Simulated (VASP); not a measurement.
# Valence-band splitting and hole masses of zinc-blende GaN under uniaxial [001] stress, r2SCAN with spin-orbit coupling on LDA cells

In zinc-blende GaN each gallium atom is bonded to four nitrogen atoms, and the top valence states are built mainly from nitrogen 2p orbitals. Cubic symmetry makes the three p directions equivalent, and stress along [001] removes that equivalence. The question is how far the levels move apart and which of them ends on top, since that level sets the mass of the holes and so matters for transport and for the polarisation of emitted light. The calculation covers strains from −2 % to +2 % along the axis, with the crystal free to respond across it. Level depths are counted downwards from the valence-band top at the zone centre, and masses are in units of the free-electron mass.

## Calculations

The start is a typed prototype cell. The crystal was relaxed with LDA. Strain is imposed along [001]; the strain across the axis is adjusted until the stress across it vanishes, and the atoms are relaxed with LDA. VASP 6.6.1, plane waves with PAW, cutoff 600 eV, no spin polarisation. Band edges are single points at r2SCAN with spin-orbit coupling on these cells, k mesh 9×9×9, read on short lines of k points at the zone centre and through the valleys; energies are counted from the valence-band top at the zone centre. Each level is the mean of a Kramers pair; masses are fitted within 0.05 1/Å of the zone centre and are rough where two bands nearly touch. All levels use the PAW data sets made with LDA.

Notes on method and selection:

- Runs that did not converge, have known faults or may not be shown are not listed, and runs on Ansatz's PAW sets soft_1 and soft_2 are kept to separate tables.

Columns:

- strain (%): strain along the axis (tension positive).
- second level (eV): second valence level below the top at Γ.
- third level (eV): third valence level below the top at Γ.
- mass, axis (mₑ): mass of the top hole band along the axis.
- mass, across (mₑ): mass of the top hole band across the axis.

Input lines of one member:

```
PREC = Accurate
ENCUT = 600
EDIFF = 1E-06
NELM = 100
ISMEAR = 0
SIGMA = 0.02
LREAL = .FALSE.
ALGO = Normal
METAGGA = R2SCAN
LASPH = .TRUE.
LNONCOLLINEAR = .TRUE.
NBANDS = 28
GGA_COMPAT = .FALSE.
LSORBIT = .TRUE.
KPAR = 3
```

Command (options for logging and memory left out): `mpirun -np 3 vasp_ncl`

## Numbers

| member | sign of the strain | strain (%) | second level (eV) | third level (eV) | mass, axis (mₑ) | mass, across (mₑ) |
| --- | --- | --- | --- | --- | --- | --- |
| −2 % | compression | −2.0 | 0.1199 | 0.1268 | 0.190 | 0.836 |
| −1.5 % | compression | −1.5 | 0.0902 | 0.0969 | 0.190 | 0.831 |
| −1 % | compression | −1.0 | 0.0599 | 0.0665 | 0.189 | 0.823 |
| −0.5 % | compression | −0.5 | 0.0292 | 0.0358 | 0.168 | 0.813 |
| 0 % | compression | 0.0 | 0.0000 | 0.0089 | 0.887 | 0.887 |
| 0 % | tension | 0.0 | 0.0000 | 0.0089 | 0.887 | 0.887 |
| +0.5 % | tension | 0.5 | 0.0051 | 0.0356 | 0.887 | 0.503 |
| +1 % | tension | 1.0 | 0.0053 | 0.0681 | 0.854 | 0.492 |
| +1.5 % | tension | 1.5 | 0.0053 | 0.1013 | 0.854 | 0.487 |
| +2 % | tension | 2.0 | 0.0052 | 0.1352 | 0.854 | 0.495 |

third level (eV) against strain (%):

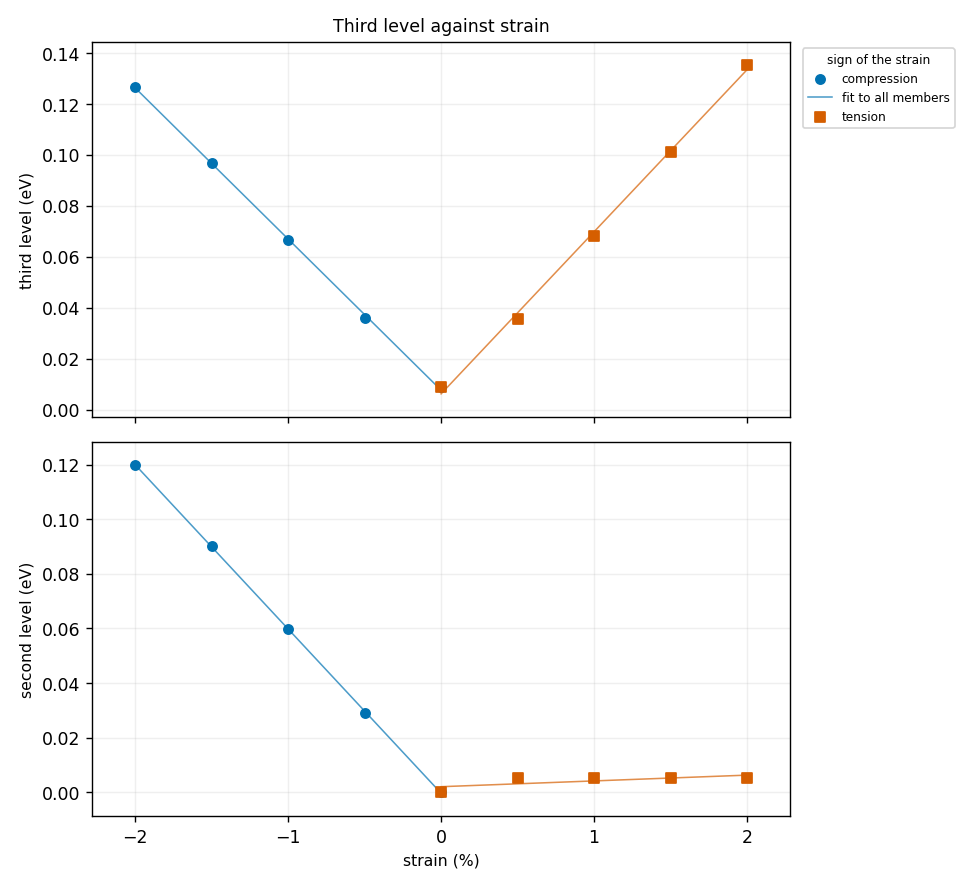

Least-squares fits to the whole series, with x = strain (%); R² and errors in the fitted variable (y, or ln y where the fit is in ln y):

| y | sign of the strain | members | fit | R² | rms residual | leave-one-out rms | the same for the mean of the others |
| --- | --- | --- | --- | --- | --- | --- | --- |
| third level (eV) | compression | 5 | y = 0.007600 − 0.05938 x | 1.00 | 9.4×10⁻⁴ | 0.0018 | 0.052 |
| third level (eV) | tension | 5 | y = 0.006160 + 0.06366 x | 1.00 | 0.0020 | 0.0040 | 0.056 |
| second level (eV) | compression | 5 | y = −3.200×10⁻⁴ − 0.06016 x | 1.00 | 3.2×10⁻⁴ | 5.5×10⁻⁴ | 0.053 |
| second level (eV) | tension | 5 | y = 0.002060 + 0.002120 x | 0.51 | 0.0015 | 0.0030 | 0.0026 (fit no better) |

## Reading the trend

Without strain the two upper levels coincide and the third lies 0.0089 eV below them, which is the spin-orbit splitting. Strain of either sign opens a much larger separation, about 0.06 eV per per cent, but the order of the levels differs.

Under compression one level stands alone on top. At −2 % the other two lie 0.1199 and 0.1268 eV below it, only 0.1268 − 0.1199 = 0.0069 eV apart. Under tension two levels stay together at the top, 0.0051 to 0.0053 eV apart, while the third sinks to 0.1352 eV at +2 %.

Bond directions explain this order. Tension turns the bonds towards the axis, which strengthens the bonding of the p orbital along it (p_z) and lowers its level, leaving the p_x, p_y pair on top. Compression does the reverse and lifts p_z. Spin-orbit coupling then splits the p_x, p_y pair by about two thirds of its unstrained value, 2 × 0.0089 / 3 = 0.0059 eV, close to the small separations on both sides.

The mass follows the orbital. A p orbital pointing along the direction of motion couples to the s-like conduction band and gives a light hole; one pointing sideways gives a heavy hole. The p_z top band under compression is therefore light along the axis (0.190 at −2 %) and heavy across it (0.836). Under tension the top band is heavy along the axis (0.854 at +2 %) and lighter across it (0.495), because p_x and p_y both take part. From −2 % to +2 % the axial mass rises by a factor of 0.854 / 0.190 = 4.5, while the mass across falls by a factor of 0.836 / 0.495 = 1.7. The change is a switch of band character around zero strain: from −1 % to −2 % the axial mass hardly moves.

## Residuals

Largest departures from the fit to the whole series:

| member | sign of the strain | third level (eV) | fit | computed − fit | in rms residuals |
| --- | --- | --- | --- | --- | --- |
| −0.5 % | compression | 0.0358 | 0.0373 | −0.0015 | 1.6 |
| 0 % | tension | 0.0089 | 0.0062 | +0.0027 | 1.4 |
| 0 % | compression | 0.0089 | 0.0076 | +0.0013 | 1.4 |
| +0.5 % | tension | 0.0356 | 0.0380 | −0.0024 | 1.2 |

The largest departures from the straight lines for the third level sit at 0 % and ±0.5 %. The unstrained crystal lies above the tension line by 0.0027 eV and the +0.5 % member below it by 0.0024 eV; compression shows the same pattern, more weakly. Spin-orbit coupling is the reason. It already separates the third level at zero strain, so the first step of strain adds somewhat less than later ones, and the linear course sets in only once the strain splitting is clearly the larger of the two.

Among the masses, the axial value at −0.5 % stands out: 0.168 against 0.189 at −1 %. With ħ²/2mₑ ≈ 3.8 eV Å², a band of mass 0.19 falls by about 3.8 × 0.05² / 0.19 = 0.05 eV within the fitted range. That exceeds the 0.0292 eV to the second level at −0.5 %, but not the 0.0599 eV at −1 %. The light band thus runs into the heavy ones inside the fitting range, and a fit there is unreliable. The direction of the error depends on the form of the fit: a simple parabola through a top band that flattens would give too heavy a mass, while a fit with higher-order terms can give too light a one. The r2SCAN stress of this member is also out of line with its neighbours, which suggests a numerical fault in that run, although its level splittings fit the series. Whether that fault affects the mass remains open, so the low value should not be read as an effect of strain.

The masses across the axis under tension are rough for a similar reason, as a second band lies only 0.005 eV below. The small step in the axial mass between +0.5 % and +1 % may also come from the fit and should not be read as a trend.

## Using the table

**Which member offers light holes along the axis that stay in the top band at room temperature?**
Only the compressed members have a light axial mass. The thermal energy is about 0.026 eV. At −1 % the second level lies 0.0599 / 0.026 = 2.3 thermal energies down, so a state there holds about exp(−2.3) = 0.10 times as many holes as one at the top. At −2 % the distance is 0.1199 / 0.026 = 4.6, and the factor drops to about 0.01. The −2 % member is the safer choice, with an axial mass of 0.190.

**How much tension puts the third level 0.10 eV below the top?**
The tension line gives (0.10 − 0.00616) / 0.06366 = 1.47 %. The +1.5 % member, with 0.1013 eV, confirms it. The second level is still only 0.0053 eV down, or 0.0053 / 0.026 = 0.2 thermal energies, so two bands share the holes.

**Can spin-orbit coupling be left out to save time?**
For the large splitting at −2 %, nearly. Without the coupling the two lower levels would merge close to their mean, (0.1199 + 0.1268) / 2 = 0.1234 eV, a shift of 0.1234 − 0.1199 = 0.0035 eV or 3 %. For the masses under tension it cannot: the 0.0052 eV separation at +2 % would vanish, and the top band across the axis would take on the heavy character of a sideways p orbital.

## Conclusions

Between −2 % and +2 % the sign of the strain decides the character of the top hole band. Compression isolates a single band, the better the larger the strain; tension leaves a close pair at any strain in the series. By the symmetry of the orbitals, light emitted through the p_z band should be polarised mainly along the axis, and light emitted through the p_x, p_y pair mainly across it. The gap remains direct at the zone centre throughout.

r2SCAN gives too small a gap for semiconductors of this kind. This exaggerates the coupling between the light hole and the conduction band, so the light axial masses under compression are probably too low; the heavy masses should suffer less. The cells come from LDA, which tends to make bonds slightly short and so widens the gap a little, offsetting part of that error. Lattice vibrations are absent, and their coupling to the holes would make the masses heavier. No measured splittings or masses are compared here.

[Logs are printed without paths, hosts, clocks, repeated set-up lines and the standing remarks that a program may print on its own settings, such as how far it seeks lower states.]
